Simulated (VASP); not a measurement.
# Conduction valleys of zinc-blende BP under even compression and expansion, from TB-mBJ with spin-orbit coupling

In a BP layer meant to carry both current and heat, the lowest conduction valley sets the electron mass and decides whether light emission needs a phonon. A change of volume, from pressure or heating, moves the valleys by different amounts and might reorder them. The problem is to find how fast the Γ, Δ and L levels of BP (F-43m) move with volume, whether their order changes, and where the Γ level lies at V/V0 = 0.985. The levels are TB-mBJ energies with spin-orbit coupling on evenly scaled cells, counted from the valence-band top at Γ. Volume is measured against the reference cell as x = 100 ln(V/V0), so one unit of x is close to one percent.

## Calculations

The start is a typed prototype cell. The crystal was relaxed with LDA. It is scaled evenly about that cell, atoms relaxed with LDA. VASP 6.6.1, plane waves with PAW, cutoff 480 eV, no spin polarisation. Band edges are single points at TB-mBJ with spin-orbit coupling on these cells, k mesh 9×9×9, read on short lines of k points at the zone centre and through the valleys; energies are counted from the valence-band top at the zone centre.  All levels use the PAW data sets made with LDA.

Notes on method and selection:

- A valley's energy from the valence-band top holds the shift of that top as well as the shift of the valley.
- The TB-mBJ parameter c is fixed anew from the density of each cell, so it changes along the series.
- Runs that did not converge, have known faults or may not be shown are not listed, and runs on Ansatz's PAW sets soft_1 and soft_2 are kept to separate tables.

Columns:

- 100 ln(V/V0): 100 ln(V/V0), V0 the volume of the reference cell.
- Γ level (eV): lowest conduction level at Γ.
- Δ valley (eV): minimum of the conduction band along Γ–X.
- L valley (eV): conduction level at L.

Input lines of one member:

```
PREC = Accurate
ENCUT = 480
EDIFF = 1E-06
NELM = 150
ISMEAR = 0
SIGMA = 0.02
LREAL = .FALSE.
ALGO = Normal
METAGGA = MBJ
LASPH = .TRUE.
LNONCOLLINEAR = .TRUE.
NBANDS = 18
GGA_COMPAT = .FALSE.
LSORBIT = .TRUE.
KPAR = 3
```

Command (options for logging and memory left out): `mpirun -np 3 vasp_ncl`

## The series

| member | 100 ln(V/V0) | Γ level (eV) | Δ valley (eV) | L valley (eV) |
| --- | --- | --- | --- | --- |
| V/V0 = 0.94 | −6.19 | 4.389 | 1.915 | 5.104 |
| V/V0 = 0.955 | −4.60 | 4.359 | 1.942 | 5.008 |
| V/V0 = 0.97 | −3.05 | 4.332 | 1.967 | 4.913 |
| V/V0 = 0.985 | −1.51 | ? | ? | ? |
| V/V0 = 1 | 0.00 | 4.280 | 2.015 | 4.733 |
| V/V0 = 1.015 | 1.49 | 4.256 | 2.038 | 4.646 |
| V/V0 = 1.03 | 2.96 | 4.233 | 2.059 | 4.561 |
| V/V0 = 1.045 | 4.40 | 4.212 | 2.080 | 4.477 |
| V/V0 = 1.06 | 5.83 | 4.191 | 2.100 | 4.396 |

Cells marked ? are withheld until the estimate has been made.

Γ level (eV) against 100 ln(V/V0), members shown:

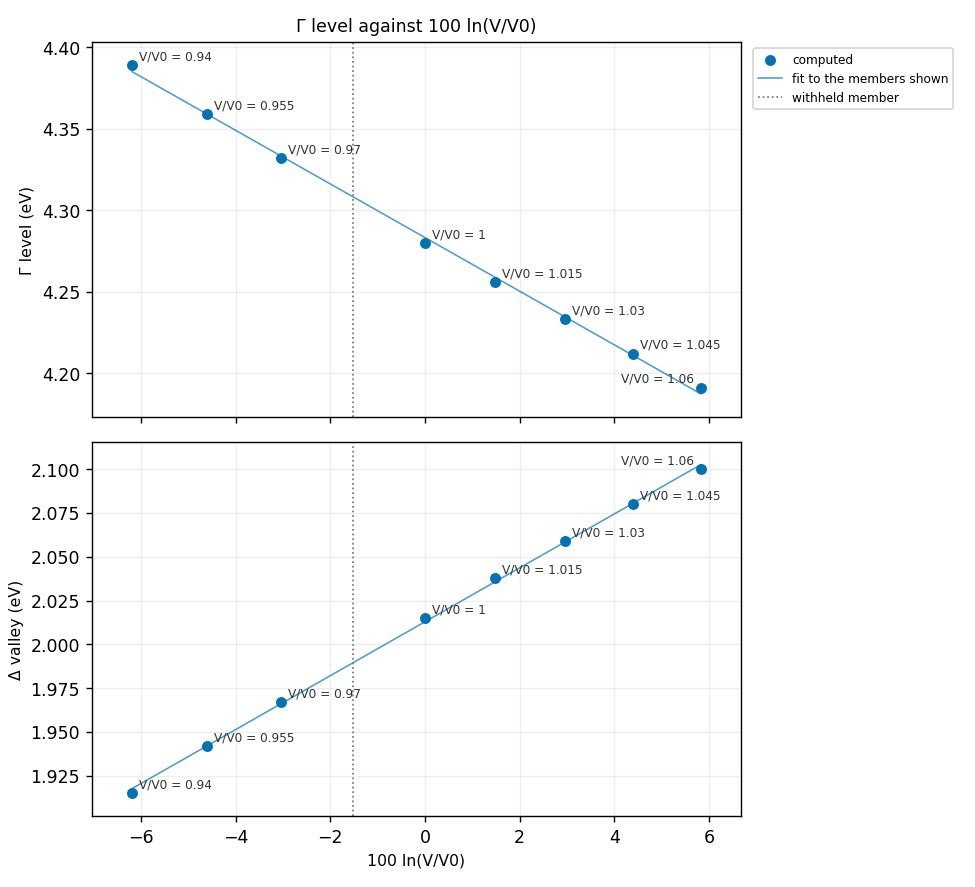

Least-squares fits to the members shown, with x = 100 ln(V/V0); R² and errors in the fitted variable (y, or ln y where the fit is in ln y):

| y | members | fit | R² | rms residual | leave-one-out rms | the same for the mean of the others |
| --- | --- | --- | --- | --- | --- | --- |
| Γ level (eV) | 8 | y = 4.2832 − 0.016470 x | 1.00 | 0.0026 | 0.0038 | 0.077 |
| Δ valley (eV) | 8 | y = 2.0129 + 0.015394 x | 1.00 | 0.0018 | 0.0026 | 0.072 |

## Reading the trend

Between the smallest and the largest cell x grows by 5.83 + 6.19 = 12.02. The mean slopes per unit of x are:

- Γ: (4.191 − 4.389) / 12.02 = −0.0165 eV
- Δ: (2.100 − 1.915) / 12.02 = +0.0154 eV
- L: (4.396 − 5.104) / 12.02 = −0.0589 eV

The order Δ, Γ, L from below holds in all eight complete rows, so BP stays indirect in each of them. The upper two levels do approach each other: L lies 5.104 − 4.389 = 0.715 eV above Γ in the smallest cell and 4.396 − 4.191 = 0.205 eV above it in the largest. These spacings are free of the shift of the valence top, which enters every single slope.

The fall of Γ and L is usually put down to bonding. Longer bonds mean weaker overlap and a smaller splitting between bonding and antibonding states. In BP, as in silicon, the lowest conduction level at Γ is known to be p-like, while the L level has much s-antibonding character and responds more strongly to bond length. If the splitting at Γ went as 1/d², with d the bond length, its slope would be −(2/3) × 4.280 / 100 = −0.029 eV per unit of x. That is the right sign but well above the calculated size, so the law serves only as a rough guide.

The Δ state is less antibonding between neighbours and has much of its charge in the open parts of the lattice, which is the usual reason given for its not falling with the others. The level energies alone do not test this. Its minimum also moves towards Γ on expansion, but this adds nothing to the slope at first order, because the band is flat at its minimum.

The TB-mBJ parameter c changes from cell to cell and contributes to the slopes. It does not set the signs for Δ and Γ, since LDA on the same cells also gives a widening indirect gap and a narrowing direct gap.

## An estimate before looking

Plain estimates from the members shown:

- V/V0 = 0.985, fit at x = −1.51: 4.308 eV
- V/V0 = 0.985, straight-line interpolation between V/V0 = 0.97 and V/V0 = 1: w = (−1.51 − (−3.05)) / (0.00 − (−3.05)) = 0.505, so 4.332 + 0.505 × (4.280 − 4.332) = 4.306 eV

Interpolation between the two neighbours deserves more trust than the straight-line fit. The Γ level flattens as the cell grows, and the fit misses this: at x = 0 it gives 4.283 eV where the table has 4.280 eV.

The same curvature puts the interpolated value slightly too high, because a chord lies above a curve that bends upwards. The mean slope is (4.280 − 4.389) / 6.19 = −0.0176 eV on the compressed side and (4.191 − 4.280) / 5.83 = −0.0153 eV on the expanded side. The midpoints of these two ranges are (6.19 + 5.83) / 2 = 6.01 apart, so the slope changes by (0.0176 − 0.0153) / 6.01 = 0.0004 eV per unit of x squared. A chord lies above a parabola by half this curvature times the distances to the two neighbours, here 3.05 − 1.51 = 1.54 and 1.51. The correction is therefore −0.5 × 0.0004 × 1.54 × 1.51 = −0.0005 eV, and the estimate becomes 4.332 + 0.505 × (4.280 − 4.332) − 0.0005 = 4.305 eV.

The same route can be tried on V/V0 = 1.015, from its neighbours at 1 and 1.03. It gives 4.280 − (1.49 / 2.96) × (4.280 − 4.233) − 0.5 × 0.0004 × 1.49 × (2.96 − 1.49) = 4.256 eV, as in the table. For V/V0 = 0.955, from 0.94 and 0.97, it gives 4.389 − (6.19 − 4.60) / (6.19 − 3.05) × (4.389 − 4.332) − 0.5 × 0.0004 × (6.19 − 4.60) × (4.60 − 3.05) = 4.3596 eV against 4.359 eV. Misses of this size are close to the printed rounding, and an error of 0.001 eV covers them.

**Committed estimate, V/V0 = 0.985: Γ level = 4.305 ± 0.001 eV.**

## Outcome

| member | 100 ln(V/V0) | Γ level (eV) | Δ valley (eV) | L valley (eV) |
| --- | --- | --- | --- | --- |
| V/V0 = 0.985 | −1.51 | 4.305 | 1.992 | 4.822 |

| member | estimate | Γ level (eV) | computed | estimate − computed | miss in error bars |
| --- | --- | --- | --- | --- | --- |
| V/V0 = 0.985 | committed | 4.305 | 4.305 | 0.000 | 0.0 |
| V/V0 = 0.985 | fit | 4.308 | 4.305 | +0.003 |  |
| V/V0 = 0.985 | interpolation | 4.306 | 4.305 | +0.001 |  |

Γ level (eV) against 100 ln(V/V0):

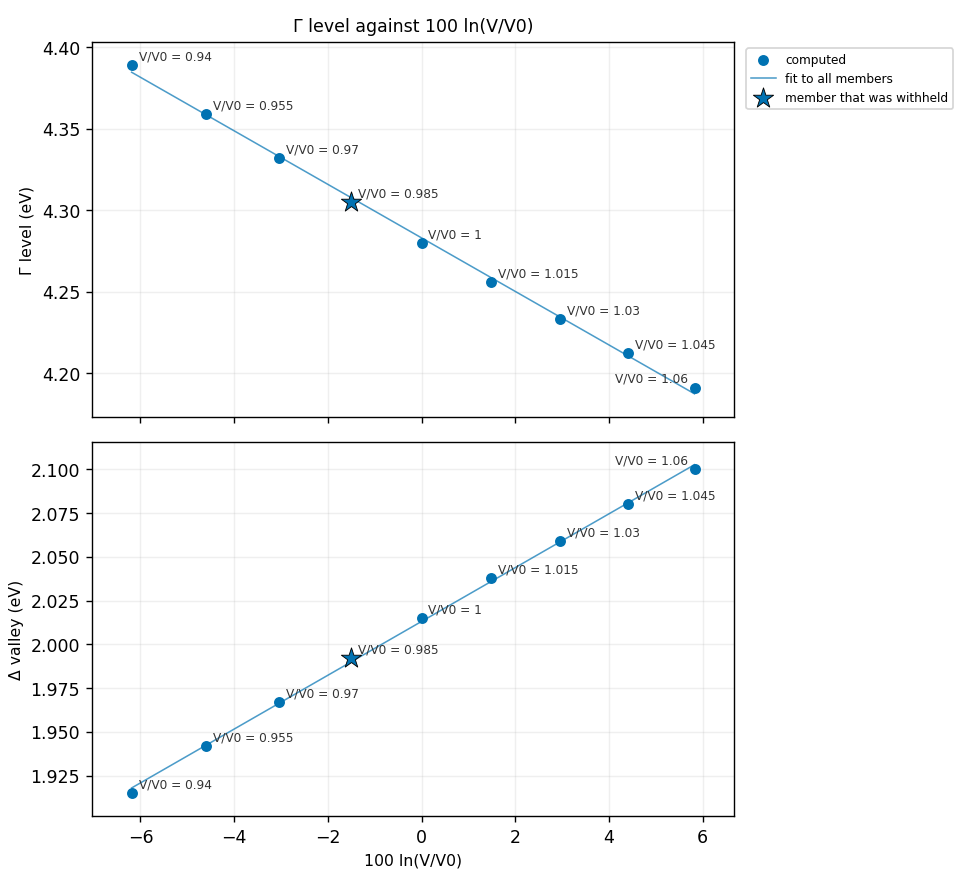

The estimate of 4.305 eV agrees with the computed 4.305 eV and so lies inside its error bar of 0.001 eV. The straight-line fit is 0.003 eV too high and the plain interpolation 0.001 eV too high.

The expectation that the fit would overshoot near the middle of the series was right. The further correction for curvature, 0.0005 eV, is as small as the printed rounding, so the agreement is no real test of it.

The 1/d² law fails here as it did before. From the new row to the reference cell the Γ level changes by (4.280 − 4.305) / 1.51 = −0.017 eV per unit of x, against −0.029 eV from the law. Weaker bonding on expansion gives the right sign, but a smooth interpolation says little about the mechanism behind it.

The new row also keeps the order of the valleys, with Δ at 1.992 eV, Γ at 4.305 eV and L at 4.822 eV.

## Where the trend breaks

Least-squares fits to the whole series, with x = 100 ln(V/V0); R² and errors in the fitted variable (y, or ln y where the fit is in ln y):

| y | members | fit | R² | rms residual | leave-one-out rms | the same for the mean of the others |
| --- | --- | --- | --- | --- | --- | --- |
| Γ level (eV) | 9 | y = 4.283 − 0.01644 x | 1.00 | 0.0026 | 0.0037 | 0.072 |
| Δ valley (eV) | 9 | y = 2.0131 + 0.015369 x | 1.00 | 0.0018 | 0.0026 | 0.067 |

Largest departures from the fit to the whole series:

| member | Γ level (eV) | fit | computed − fit | in rms residuals |
| --- | --- | --- | --- | --- |
| V/V0 = 0.94 | 4.389 | 4.385 | +0.004 | 1.6 |
| V/V0 = 1.06 | 4.191 | 4.187 | +0.004 | 1.5 |
| V/V0 = 1 | 4.280 | 4.283 | −0.003 | 1.2 |
| V/V0 = 0.985 | 4.305 | 4.308 | −0.003 | 1.1 |

None of the nine cells stands out. The Γ level lies 0.004 eV above the fitted line at both ends and 0.003 eV below it at V/V0 = 0.985 and 1, as expected when a straight line is laid through a level that falls more slowly as the cell grows. LDA on the same cells shows this flattening too, so a changing TB-mBJ parameter is not needed to produce it.

## What to take away

From V/V0 = 0.94 to 1.06 the order is Δ, Γ, L in all nine cells, and BP stays indirect. For another cell inside this range, interpolation between neighbours should give the Γ level to about 0.001 eV.

In the form used for strained layers, the indirect gap has a volume deformation potential of 100 × 0.0154 = 1.54 eV, so 1 % more volume widens it by about 15 meV. This is a change of gap, not the shift of the Δ valley alone.

Lattice vibrations, which are left out, lower the indirect gap, and more strongly as the crystal warms. Thermal expansion by itself widens it, so the volume slope alone does not give the change of the gap on heating.

[Logs are printed without paths, hosts, clocks, repeated set-up lines and the standing remarks that a program may print on its own settings, such as how far it seeks lower states.]
